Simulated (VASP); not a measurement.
# Valence-band splitting and top-hole masses of Si (Fd-3m) under [111] strain, TB-mBJ with spin-orbit coupling

In a p-channel silicon transistor the current is carried by holes at the top of the valence band, and strain is used to make them lighter in the direction of transport. The problem is to find how stress along [111] splits the three uppermost valence levels of Si at the zone centre, and how the mass of the top hole band differs between compression and tension. The levels are calculated with TB-mBJ and spin-orbit coupling on cells relaxed with LDA. They are given as depths below the valence-band top of the same cell, so a larger number means a deeper level. The comparison is between strains; no measured splitting or mass is shown in the table.

## Computational details

The start is a typed prototype cell. The crystal was relaxed with LDA. Strain is imposed along [111]; the strain across the axis is adjusted until the stress across it vanishes, and the atoms are relaxed with LDA. VASP 6.6.1, plane waves with PAW, cutoff 450 eV, no spin polarisation. Band edges are single points at TB-mBJ with spin-orbit coupling on these cells, k mesh 8×8×8, read on short lines of k points at the zone centre and through the valleys; energies are counted from the valence-band top at the zone centre. Each level is the mean of a Kramers pair; masses are fitted within 0.05 1/Å of the zone centre and are rough where two bands nearly touch. All levels use the PAW data sets made with LDA.

Notes on method and selection:

- Runs that did not converge, have known faults or may not be shown are not listed, and runs on Ansatz's PAW sets soft_1 and soft_2 are kept to separate tables.

Columns:

- strain (%): strain along the axis (tension positive).
- second level (eV): second valence level below the top at Γ.
- third level (eV): third valence level below the top at Γ.
- mass, axis (mₑ): mass of the top hole band along the axis.
- mass, across (mₑ): mass of the top hole band across the axis.

Input lines of one member:

```
PREC = Accurate
ENCUT = 450
EDIFF = 1E-06
NELM = 150
ISMEAR = 0
SIGMA = 0.02
LREAL = .FALSE.
ALGO = Normal
METAGGA = MBJ
LASPH = .TRUE.
LNONCOLLINEAR = .TRUE.
NBANDS = 18
GGA_COMPAT = .FALSE.
LSORBIT = .TRUE.
KPAR = 2
```

Command (options for logging and memory left out): `mpirun -np 2 vasp_ncl`

## Data

| member | sign of the strain | strain (%) | second level (eV) | third level (eV) | mass, axis (mₑ) | mass, across (mₑ) |
| --- | --- | --- | --- | --- | --- | --- |
| −2 % | compression | −2.0 | 0.2341 | 0.267 | 0.129 | 0.613 |
| −1.5 % | compression | −1.5 | 0.1696 | 0.203 | 0.126 | 0.634 |
| −1 % | compression | −1.0 | 0.1090 | 0.144 | 0.124 | 0.658 |
| −0.5 % | compression | −0.5 | ? | ? | ? | ? |
| 0 % | compression | 0.0 | 0.0000 | 0.047 | 0.771 | 0.653 |
| 0 % | tension | 0.0 | 0.0000 | 0.047 | 0.771 | 0.653 |
| +0.5 % | tension | 0.5 | 0.0221 | 0.084 | 0.795 | 0.225 |
| +1 % | tension | 1.0 | 0.0268 | 0.138 | 0.793 | 0.221 |
| +1.5 % | tension | 1.5 | 0.0284 | 0.194 | 0.811 | 0.218 |
| +2 % | tension | 2.0 | 0.0292 | 0.250 | 0.820 | 0.219 |

Cells marked ? are withheld until the estimate has been made.

third level (eV) against strain (%), members shown:

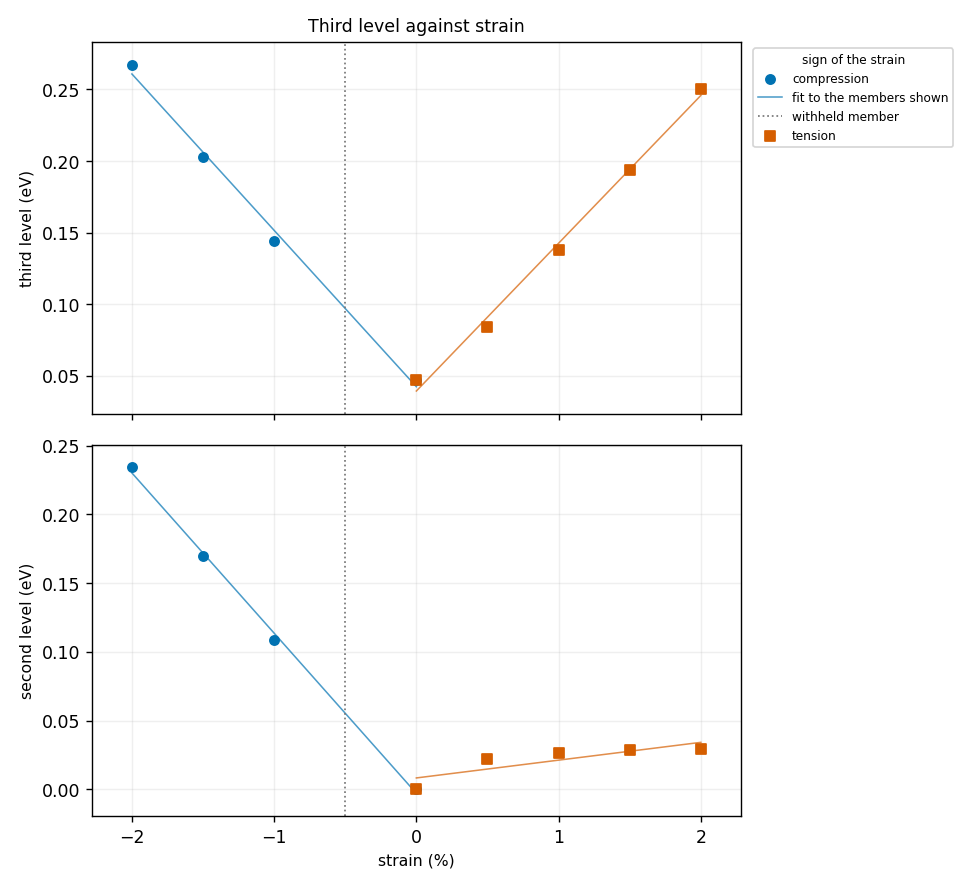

Least-squares fits to the members shown, with x = strain (%); R² and errors in the fitted variable (y, or ln y where the fit is in ln y):

| y | sign of the strain | members | fit | R² | rms residual | leave-one-out rms | the same for the mean of the others |
| --- | --- | --- | --- | --- | --- | --- | --- |
| third level (eV) | compression | 4 | y = 0.04240 − 0.1092 x | 1.00 | 0.0056 | 0.016 | 0.11 |
| third level (eV) | tension | 5 | y = 0.03940 + 0.1032 x | 0.99 | 0.0054 | 0.011 | 0.091 |
| second level (eV) | compression | 4 | y = −0.002871 − 0.1165 x | 1.00 | 0.0036 | 0.010 | 0.11 |
| second level (eV) | tension | 5 | y = 0.008360 + 0.01294 x | 0.70 | 0.0060 | 0.012 | 0.014 |

## Mechanism

Without strain the two upper levels coincide, and spin-orbit coupling puts the third 0.047 eV below them. Strain of either sign lifts the degeneracy, because the crystal becomes trigonal, but the pattern depends on the sign. From −1 % to −2 % the second level deepens by 0.2341 − 0.1090 = 0.1251 eV. From +1 % to +2 % it deepens by only 0.0292 − 0.0268 = 0.0024 eV, while the third deepens by 0.250 − 0.138 = 0.112 eV.

The valence top is built from three p orbitals. A trigonal field separates the one along the axis (a singlet) from the two across it (a doublet). Compression puts the singlet on top, so both lower levels move away from it. Tension puts the doublet on top; its two levels are held apart mainly by spin-orbit coupling, and their separation therefore hardly grows. A likely reason for the order is that compression tilts the three inclined bonds away from the axis, which weakens the bonding of the axial orbital and raises its level.

The masses fit this assignment. A p orbital overlaps strongly along its own direction, so the singlet band is light along the axis and heavy across it. At −1 % the masses are 0.124 and 0.658 mₑ; at +1 % they are 0.793 and 0.221 mₑ. Going from compression to tension thus makes the top hole 0.793 / 0.124 = 6.4 times heavier along the axis and 0.658 / 0.221 = 3.0 times lighter across it. The change comes from an exchange of band character; among the strained members of each sign the masses vary little.

The masses across the axis under tension are rough. With ħ²/2mₑ of about 3.8 eV Å², a hole of 0.22 mₑ at the edge of the fit range has an energy of about 3.8 × 0.05² / 0.22 = 0.043 eV, more than the distance to the second level.

## Blind estimate

Plain estimates from the members shown:

- −0.5 % (compression), fit at x = −0.5: 0.097 eV
- −0.5 % (compression), straight-line interpolation between −1 % and 0 %: w = (−0.5 − (−1.0)) / (0.0 − (−1.0)) = 0.500, so 0.144 + 0.500 × (0.047 − 0.144) = 0.096 eV

Straight-line interpolation gives 0.096 eV at −0.5 %, but it should lie too high. Spin-orbit coupling mixes the singlet with one doublet level, so the depth of the third level starts slowly and steepens with compression. Count energies from the doublet without spin-orbit coupling. One doublet level then stays pure and lies at Δ/3; the other, at −Δ/3, couples to the singlet at s with strength √2 Δ/3. Under compression the top and third levels are the upper and lower of this mixed pair, so the depth of the third is their separation,

E₃ = √((s + Δ/3)² + 8Δ²/9),

where Δ = 0.047 eV is the unstrained splitting and s is the height of the singlet above the doublet without spin-orbit coupling. Hence Δ/3 is 0.047 / 3 = 0.0157 eV, and the second term under the root is 8 × 0.047² / 9 = 0.00196 eV².

The −1 % member gives s = √(0.144² − 0.00196) − 0.0157 = 0.1213 eV. The same model then puts its second level at (0.144 + 0.1213 − 0.047) / 2 = 0.109 eV, as in the table.

To first order s is proportional to strain, so at −0.5 % it is 0.1213 / 2 = 0.0607 eV, and

E₃ = √((0.0607 + 0.0157)² + 0.00196) = 0.088 eV.

Scaling s from −1 % in the same way gives 0.203 eV at −1.5 %, where the table has 0.203 eV, and √((2 × 0.1213 + 0.0157)² + 0.00196) = 0.262 eV at −2 %, where it has 0.267 eV. The larger miss corresponds to a departure of s from proportionality by about 2 %. The same departure at −0.5 % would change E₃ by about 0.001 eV, which is taken as the error.

**Committed estimate, −0.5 % (compression): third level = 0.088 ± 0.001 eV.**

## How the estimate fared

| member | sign of the strain | strain (%) | second level (eV) | third level (eV) | mass, axis (mₑ) | mass, across (mₑ) |
| --- | --- | --- | --- | --- | --- | --- |
| −0.5 % | compression | −0.5 | 0.0504 | 0.088 | 0.116 | 0.638 |

| member | estimate | third level (eV) | computed | estimate − computed | miss in error bars |
| --- | --- | --- | --- | --- | --- |
| −0.5 % (compression) | committed | 0.088 | 0.088 | 0.000 | 0.0 |
| −0.5 % (compression) | fit | 0.097 | 0.088 | +0.009 |  |
| −0.5 % (compression) | interpolation | 0.096 | 0.088 | +0.008 |  |

third level (eV) against strain (%):

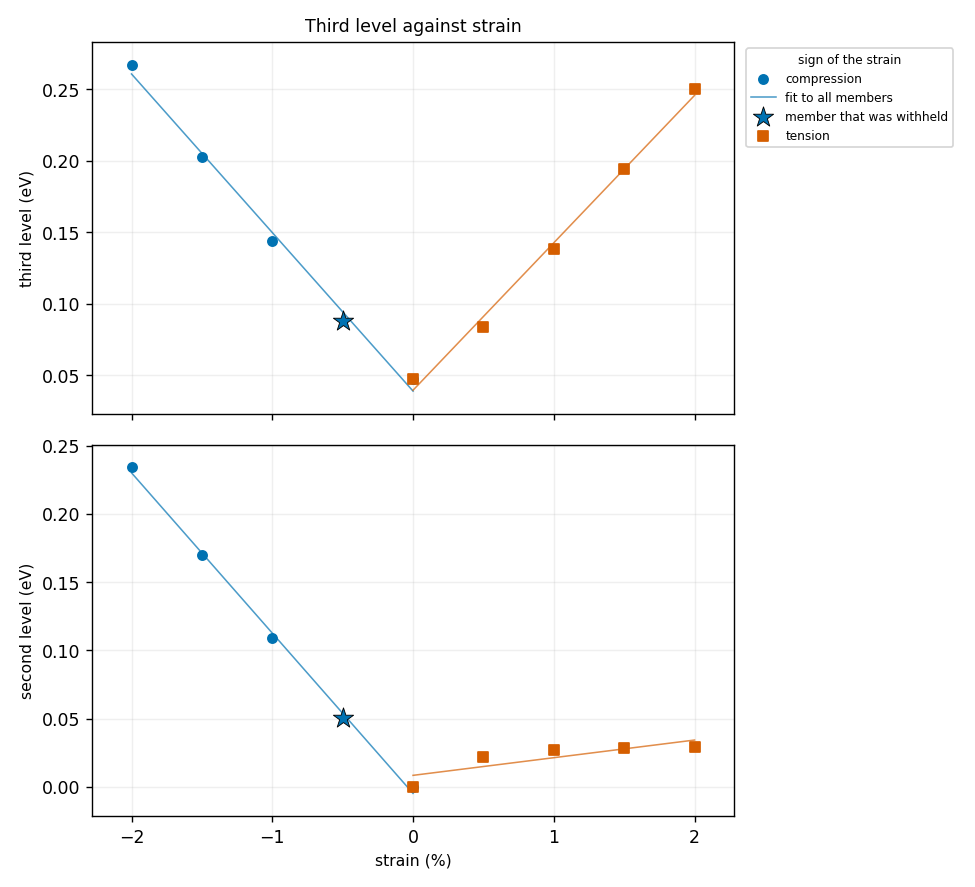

The estimate of 0.088 eV agrees with the computed 0.088 eV to the printed digit, inside its error bar of 0.001 eV. The fit and the interpolation are too high by 0.009 and 0.008 eV, because both take the depth of the third level to be linear in strain.

The argument that held is that the singlet–doublet separation s is proportional to strain, while spin-orbit mixing bends the level itself. The second level offers a further check: with s = 0.0607 eV the model puts it at (0.088 + 0.0607 − 0.047) / 2 = 0.051 eV, and the table has 0.0504 eV.

Proportionality carries over less well to large tension. There the third level lies at (Δ − s + R) / 2, where R is the square root used for E₃ and s is negative. Reversing and doubling the −1 % value gives s = −2 × 0.1213 = −0.2426 eV at +2 %, so R = √((−0.2426 + 0.0157)² + 0.00196) = 0.231 eV and the third level is at (0.047 + 0.2426 + 0.231) / 2 = 0.260 eV. The table has 0.250 eV, so s grows somewhat more slowly than the strain on that side.

## Where the trend breaks

Least-squares fits to the whole series, with x = strain (%); R² and errors in the fitted variable (y, or ln y where the fit is in ln y):

| y | sign of the strain | members | fit | R² | rms residual | leave-one-out rms | the same for the mean of the others |
| --- | --- | --- | --- | --- | --- | --- | --- |
| third level (eV) | compression | 5 | y = 0.03880 − 0.1110 x | 0.99 | 0.0061 | 0.013 | 0.098 |
| third level (eV) | tension | 5 | y = 0.03940 + 0.1032 x | 0.99 | 0.0054 | 0.011 | 0.091 |
| second level (eV) | compression | 5 | y = −0.004860 − 0.1175 x | 1.00 | 0.0037 | 0.0077 | 0.10 |
| second level (eV) | tension | 5 | y = 0.008360 + 0.01294 x | 0.70 | 0.0060 | 0.012 | 0.014 |

Largest departures from the fit to the whole series:

| member | sign of the strain | third level (eV) | fit | computed − fit | in rms residuals |
| --- | --- | --- | --- | --- | --- |
| 0 % | tension | 0.047 | 0.039 | +0.008 | 1.4 |
| 0 % | compression | 0.047 | 0.039 | +0.008 | 1.4 |
| +0.5 % | tension | 0.084 | 0.091 | −0.007 | 1.3 |
| −0.5 % | compression | 0.088 | 0.094 | −0.006 | 1.0 |

The largest departures of the third level from the straight lines come from curvature, not from a faulty member. The unstrained crystal, which is one calculation listed under both signs, lies 0.008 eV above each line, and the members at +0.5 % and −0.5 % lie 0.007 and 0.006 eV below. Spin-orbit coupling already separates the third level at zero strain, so a small strain adds little at first. Under tension the level deepens by 0.084 − 0.047 = 0.037 eV over the first half per cent and by 0.250 − 0.194 = 0.056 eV over the last.

Among the masses, the 0.116 mₑ along the axis at −0.5 % deserves caution. At the edge of the fit range such a hole has an energy of about 3.8 × 0.05² / 0.116 = 0.08 eV, more than the 0.0504 eV to the second level. The top band therefore meets the heavier second band within the range of the fit, and the small difference from the 0.124 mₑ at −1 % cannot safely be read as an effect of strain alone.

## What to take away

Between −2 % and +2 %, [111] compression gives a top hole band that is light along the axis, and tension one that is light across it. For the third level, the spin-orbit model scaled from −1 % is good to about 0.005 eV under compression and 0.01 eV under tension.

For a device at room temperature, where kT is roughly 0.026 eV, the second level matters as much as the mass. At −0.5 % it lies 0.0504 / 0.026 = 1.9 kT below the top, but at +2 % only 0.0292 / 0.026 = 1.1 kT. From +1.5 % to +2 % it deepens by only 0.0292 − 0.0284 = 0.0008 eV, so in this range more tension hardly empties the second band.

No omitted effect is expected to exceed the 0.22 eV spread of the third level. Lattice vibrations shift the band gap, but largely move the three valence levels together.

[Logs are printed without paths, hosts, clocks, repeated set-up lines and the standing remarks that a program may print on its own settings, such as how far it seeks lower states.]
